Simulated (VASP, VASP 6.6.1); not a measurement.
# Basal-plane lattice constant of hcp rhenium: PBEsol with tests of k mesh, cutoff and spin-orbit coupling

## The question

The reference is the basal-plane lattice constant of bulk rhenium, $a = 2.761$ Å, taken from "Structural evolution of Re (0001) thin films grown on Nb (110) surfaces by molecular beam epitaxy" (2010, arXiv:1008.4577). It is a literature value for the bulk metal, quoted there from earlier work; it was not measured on the films. Room temperature is implied, and the method behind the number is not given with the value. The published structure refinement from which we take our starting cell has the same $a$. We do not count this as a second confirmation, because the two numbers may go back to related measurements. The axial constant $c$ and the cell volume are not compared here.

| compared with | measured | source's wording or label | T (K) | method |
| --- | --- | --- | --- | --- |
| lattice constant a of the conventional cell (Å) | 2.761 | basal plane lattice parameter a of bulk Re | room temperature | not stated |

Conditions are those given with the value in the passage it was taken from; "not stated" means there, and the paper may say more elsewhere. The values are a selection: others may have been left out beforehand as unlike or outlying.

## How to go about it

We want the cheapest level of theory that gives $a$ of bulk rhenium within 1 %, that is, within about 0.028 Å of the reference. For estimating the misfit between a film and its substrate this is a useful accuracy. It is also a fair demand on the theory: semilocal functionals usually reproduce the lattice constants of heavy transition metals to about a per cent or better, so a larger miss would point to a poor functional or poor settings.

The model is the perfect two-atom hcp cell, nonmagnetic, with both cell lengths free and the symmetry kept. The starting cell is stretched by 3 % in volume, so the relaxation has to find its own way back. The nuclei are static; thermal expansion and zero-point motion together should lengthen the real $a$ by roughly 0.2 %, well inside the target.

We begin with a semilocal functional on a coarse k mesh. Because rhenium is a metal with a partly filled d band, the mesh is the first setting to test, followed by the plane-wave cutoff. Spin-orbit coupling is physics that a 5d element may need, and it costs more, so it comes after the numerical settings.

System: Re, space group P6_3/mmc (Rhenium); P6_3/mmc (No. 194), 2 atoms in the cell; conventional a = 2.761, c = 4.458 A, from a published structure refinement (COD).

## 1. PBEsol on a coarse mesh

PBEsol was designed for the equilibrium properties of solids and costs no more than any other gradient-corrected functional. We start it on a 10x10x6 mesh, light for a metal but dense enough for a first answer. We expect $a$ to come out slightly below the reference, by less than 1 %.

**Run 1.** VASP 6.6.1: PBEsol; 450 eV, 10x10x6 k mesh; cell and atoms relaxed, relaxed twice, LASPH on.

Key lines of the input:
```
ALGO = Normal
EDIFF = 1E-06
EDIFFG = -0.006
ENCUT = 450
GGA = PS
IBRION = 2
ISIF = 3
ISMEAR = 1
LASPH = .TRUE.
NBANDS = 13
NELM = 100
NSW = 50
PREC = Accurate
SIGMA = 0.15
KPOINTS: Gamma, 10 10 6
PAW data sets: Re (PBE 64)
```

Command:
```
mpirun -np 4 vasp_std
```

Selected lines of the output:
```
 reached required accuracy - stopping structural energy minimisation
  external PRESSURE =       0.0316974 kB  Pullay stress =       0.0000000 kB
     2.749158243  0.000000000  0.000000000     0.363747704  0.210009835  0.000000000
```

Converged; 47 s on 4 cores of Intel Xeon Platinum 8259CL at 2.50GHz (Skylake/Cascade Lake), shared host.

| quantity | run 1 | measured | deviation |
| --- | --- | --- | --- |
| lattice constant a of the conventional cell (Å) | 2.749 | 2.761 | −0.012 (−0.4 %) |
| volume of the conventional cell (Å³) | 29.09 |  |  |
| lattice constant c of the conventional cell (Å) | 4.445 |  |  |
| space group at the end | P6_3/mmc |  |  |
| pressure left at the end (GPa) | 0.0032 |  |  |

PBEsol on the coarse mesh gives $a = 2.749$ Å, 0.4 % below the reference and inside the 1 % target. The sign is the one we expected. The relaxation has removed the 3 % volume stretch of the starting cell, and the second pass ended with almost no pressure left. That shows the cell is relaxed at these settings; it does not tell us whether the k mesh is dense enough.

## 2. Denser k meshes

The first test is the sampling of the Fermi surface. We repeat the PBEsol relaxation on three successively denser meshes, with the cutoff and smearing unchanged. At under a minute for the first run, the whole series is affordable. We expect $a$ to move by a few thousandths of an ångström at most, which would leave the result within the target.

**Run 2.** VASP 6.6.1: PBEsol; 450 eV, 15x15x8 k mesh; cell and atoms relaxed, relaxed twice, LASPH on.

Key lines of the input, as changed from run 1:
```diff
- KPOINTS: Gamma, 10 10 6
+ KPOINTS: Gamma, 15 15 8
```

Selected lines of the output:
```
     2.748125625  0.000000000  0.000000000     0.363884384  0.210088747  0.000000000
     0.000000000  0.000000000  4.450919939     0.000000000  0.000000000  0.224672655
```

Converged; 78 s of wall time.

**Run 3.** VASP 6.6.1: PBEsol; 450 eV, 18x18x10 k mesh; cell and atoms relaxed, relaxed twice, LASPH on.

Key lines of the input, as changed from run 1:
```diff
- KPOINTS: Gamma, 10 10 6
+ KPOINTS: Gamma, 18 18 10
```

Selected lines of the output:
```
     2.750704606  0.000000000  0.000000000     0.363543216  0.209891774  0.000000000
```

Converged; 92 s of wall time.

**Run 4.** VASP 6.6.1: PBEsol; 450 eV, 27x27x14 k mesh; cell and atoms relaxed, relaxed twice, LASPH on.

Key lines of the input, as changed from run 1:
```diff
- KPOINTS: Gamma, 10 10 6
+ KPOINTS: Gamma, 27 27 14
```

Selected lines of the output:
```
     2.750756135  0.000000000  0.000000000     0.363536406  0.209887842  0.000000000
     0.000000000  0.000000000  4.442249263     0.000000000  0.000000000  0.225111186
```

Converged; 4.1 min of wall time.

| quantity | run 2 | run 3 | run 4 | measured |
| --- | --- | --- | --- | --- |
| lattice constant a of the conventional cell (Å) | 2.748 | 2.751 | 2.751 | 2.761 |
| volume of the conventional cell (Å³) | 29.11 | 29.11 | 29.11 |  |
| lattice constant c of the conventional cell (Å) | 4.451 | 4.443 | 4.442 |  |
| space group at the end | P6_3/mmc | P6_3/mmc | P6_3/mmc |  |
| pressure left at the end (GPa) | 0.0595 | −0.0120 | −0.0029 |  |

The mesh moves $a$ by less than 0.003 Å over the whole series, so all four PBEsol results lie within the target. The approach is not monotonic: the 15x15x8 mesh gives the shortest $a$ and the longest $c$, while the volume hardly changes. The sampling therefore acts mainly on the axial ratio. Between the two densest meshes $a$ changes by less than 0.0001 Å, and we take 18x18x10 as sufficient for this purpose. The remaining deviation is 0.010 Å, or 0.4 %, below the reference.

## 3. A higher plane-wave cutoff

The cutoff is the other numerical setting on which the result rests. We raise it from 450 to 600 eV on the 18x18x10 mesh and leave everything else as it was. We expect a change in $a$ well below the 0.010 Å that separates PBEsol from the reference.

**Run 5.** VASP 6.6.1: PBEsol; 600 eV, 18x18x10 k mesh; cell and atoms relaxed, relaxed twice, LASPH on.

Key lines of the input, as changed from run 3:
```diff
- ENCUT = 450
+ ENCUT = 600
```

Selected lines of the output:
```
     2.750671137 -0.000000000  0.000000000     0.363547640  0.209894328  0.000000000
```

Converged; 2.8 min of wall time.

| quantity | run 5 | measured | deviation |
| --- | --- | --- | --- |
| lattice constant a of the conventional cell (Å) | 2.751 | 2.761 | −0.010 (−0.4 %) |
| volume of the conventional cell (Å³) | 29.11 |  |  |
| lattice constant c of the conventional cell (Å) | 4.443 |  |  |
| space group at the end | P6_3/mmc |  |  |
| pressure left at the end (GPa) | 0.0065 |  |  |

With the higher cutoff $a$ stays at 2.751 Å. The difference from the 450 eV run is under 0.0001 Å, too small to separate from the stopping thresholds of the two relaxations. For PBEsol, 450 eV is therefore enough, and the 0.4 % deviation from the reference does not come from the plane-wave basis.

## 4. Adding spin-orbit coupling

The physics still missing for a 5d metal is spin-orbit coupling. We add it to PBEsol on the 15x15x8 mesh, where the dearer calculation stays affordable, and compare it with the scalar-relativistic run on that same mesh, so that no difference in mesh enters the comparison. Spin-orbit coupling splits the d bands, but much of its effect on the total energy should cancel between neighbouring volumes. We expect $a$ to shift by no more than a few thousandths of an ångström.

**Run 6.** VASP 6.6.1: PBEsol with spin-orbit coupling; 450 eV, 15x15x8 k mesh; cell and atoms relaxed, relaxed twice, LASPH on.

Key lines of the input, as changed from run 2:
```diff
+ GGA_COMPAT = .FALSE.
- NBANDS = 13
+ LMAXMIX = 4
+ LNONCOLLINEAR = .TRUE.
+ LSORBIT = .TRUE.
+ MAGMOM = 0 0 0 0 0 0
+ NBANDS = 26
```

Command:
```
mpirun -np 4 vasp_ncl
```

Selected lines of the output:
```
  volume of cell :       29.16
     2.752020452 -0.000000000  0.000000000     0.363369393  0.209791417  0.000000000
     0.000000000  0.000000000  4.445679804    -0.000000000  0.000000000  0.224937477
```

Converged; 7.4 min of wall time.

| quantity | run 6 | measured | deviation |
| --- | --- | --- | --- |
| lattice constant a of the conventional cell (Å) | 2.752 | 2.761 | −0.009 (−0.3 %) |
| volume of the conventional cell (Å³) | 29.16 |  |  |
| lattice constant c of the conventional cell (Å) | 4.446 |  |  |
| space group at the end | P6_3/mmc |  |  |
| pressure left at the end (GPa) | 0.0502 |  |  |

With spin-orbit coupling $a$ is 2.752 Å, 0.3 % below the reference and still well inside the target. Against the scalar-relativistic run on the same mesh, $a$ grows by 0.0039 Å and $c$ shrinks by 0.0052 Å, while the volume rises by only 0.05 Å$^3$. Most of the shift in $a$ is thus a change of axial ratio, the very quantity to which this mesh proved sensitive.

Using the same mesh for both runs does not guarantee that the sampling error cancels, because the coupling also alters the bands at the Fermi level. The GGA compatibility setting differs between the two inputs as well. The doubled number of bands merely follows from the two-component orbitals, and the mixing setting should affect the path to self-consistency rather than the converged result. We therefore read the 0.0039 Å as the combined effect of the coupling, the compatibility setting and the sampling, not as the size of the spin-orbit effect alone. For a 1 % target the coupled calculation is not needed.

## The runs side by side

| run | settings | lattice constant a of the conventional cell (Å) | deviation | cost |
| --- | --- | --- | --- | --- |
| 1 | PBEsol, 450 eV, 10x10x6 k mesh | 2.749 | −0.012 (−0.4 %) | 3.1 core-min |
| 2 | PBEsol, 450 eV, 15x15x8 k mesh | 2.748 | −0.013 (−0.5 %) | 5.2 core-min |
| 3 | PBEsol, 450 eV, 18x18x10 k mesh | 2.751 | −0.010 (−0.4 %) | 6.1 core-min |
| 4 | PBEsol, 450 eV, 27x27x14 k mesh | 2.751 | −0.010 (−0.4 %) | 17 core-min |
| 5 | PBEsol, 600 eV, 18x18x10 k mesh | 2.751 | −0.010 (−0.4 %) | 11 core-min |
| 6 | PBEsol with spin-orbit coupling, 450 eV, 15x15x8 k mesh | 2.752 | −0.009 (−0.3 %) | 30 core-min |
|  | measured | 2.761 |  |  |

The runs in order, against the measurement:

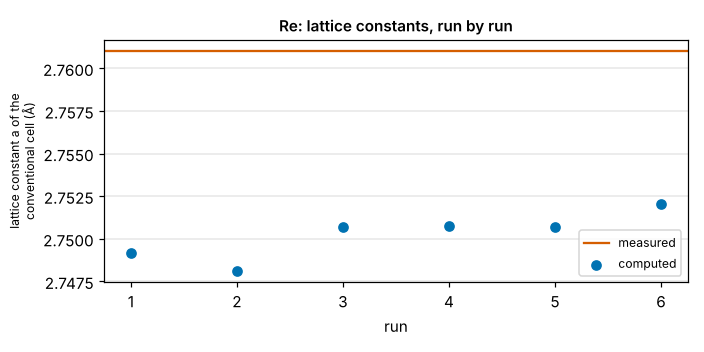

Further runs on the same system, made beside this series (convergence steps with loose settings among them):

| further | settings | lattice constant a of the conventional cell (Å) | deviation | cost |
| --- | --- | --- | --- | --- |
| F1 | r2SCAN, 450 eV, 18x18x10 k mesh, relaxed twice | 2.758 | −0.003 (−0.1 %) | 33 core-min |
| F2 | r2SCAN + rVV10, 450 eV, 18x18x10 k mesh, relaxed twice | 2.755 | −0.006 (−0.2 %) | 49 core-min |
| F3 | rev-vdW-DF2, 450 eV, 18x18x10 k mesh, relaxed twice | 2.767 | +0.006 (+0.2 %) | 12 core-min |
| F4 | TPSS, 450 eV, 18x18x10 k mesh, relaxed twice | 2.760 | −0.001 (−0.0 %) | 28 core-min |
| F5 | PBEsol + D3(BJ), 450 eV, 18x18x10 k mesh, relaxed twice | 2.733 | −0.028 (−1.0 %) | 10 core-min |
| F6 | PBE, 450 eV, 18x18x10 k mesh | 2.774 | +0.013 (+0.5 %) | 6.5 core-min |
| F7 | LDA, 450 eV, 18x18x10 k mesh, relaxed twice | 2.741 | −0.020 (−0.7 %) | 5.8 core-min |
| F8 | PBEsol, 230 eV, 18x18x10 k mesh, relaxed twice | 2.747 | −0.014 (−0.5 %) | 3.9 core-min |
|  | measured | 2.761 |  |  |

## What the runs support

PBEsol meets the 1 % target. At 450 eV on the 18x18x10 mesh it gives $a = 2.751$ Å, 0.4 % below the reference, for 6.1 core-minutes. The coarse 10x10x6 mesh already gave an answer good enough for this purpose, but it took the denser meshes to show that. Raising the cutoff to 600 eV changed nothing of note.

The spin-orbit run was not needed for the target. Its shift of 0.0039 Å is little larger than the sampling error of its mesh, so the size of the pure spin-orbit effect remains unsettled.

Leaving out thermal expansion and zero-point motion makes the computed $a$ too short by roughly 0.2 %, which could account for about half of the deviation. The rest, some 0.2 %, is of the size usual for the functional, and the agreement does not depend on these omissions cancelling another error.

The further runs show that the target does not single out PBEsol. LDA (−0.7 %) and PBE (+0.5 %) also pass, at costs that the shared machines do not let us tell apart from that of PBEsol. Allowing for thermal and zero-point motion would bring LDA closer to the reference and move PBE further away. TPSS and r2SCAN come nearer to the uncorrected value, but a 1 % target does not call for their extra cost. Adding D3(BJ) to PBEsol shortens $a$ by 0.018 Å and moves the result from a clear pass to the very edge of the target, too close to the limit to call.

The reference is a second-hand bulk value with room temperature only implied. That matters little at 1 %, but it would matter for ranking functionals that differ by a few thousandths of an ångström.

[Logs are printed without paths, hosts, clocks, repeated set-up lines and the standing remarks that a program may print on its own settings, such as how far it seeks lower states.]

[The runs shown are a pick from a larger set of finished runs; failed, doubtful and other runs were left out of it ahead of writing. So were measured values far from every level or from commonly accepted values, and agreement can look better than it is. Lines of input and output are excerpts and may be shortened.]
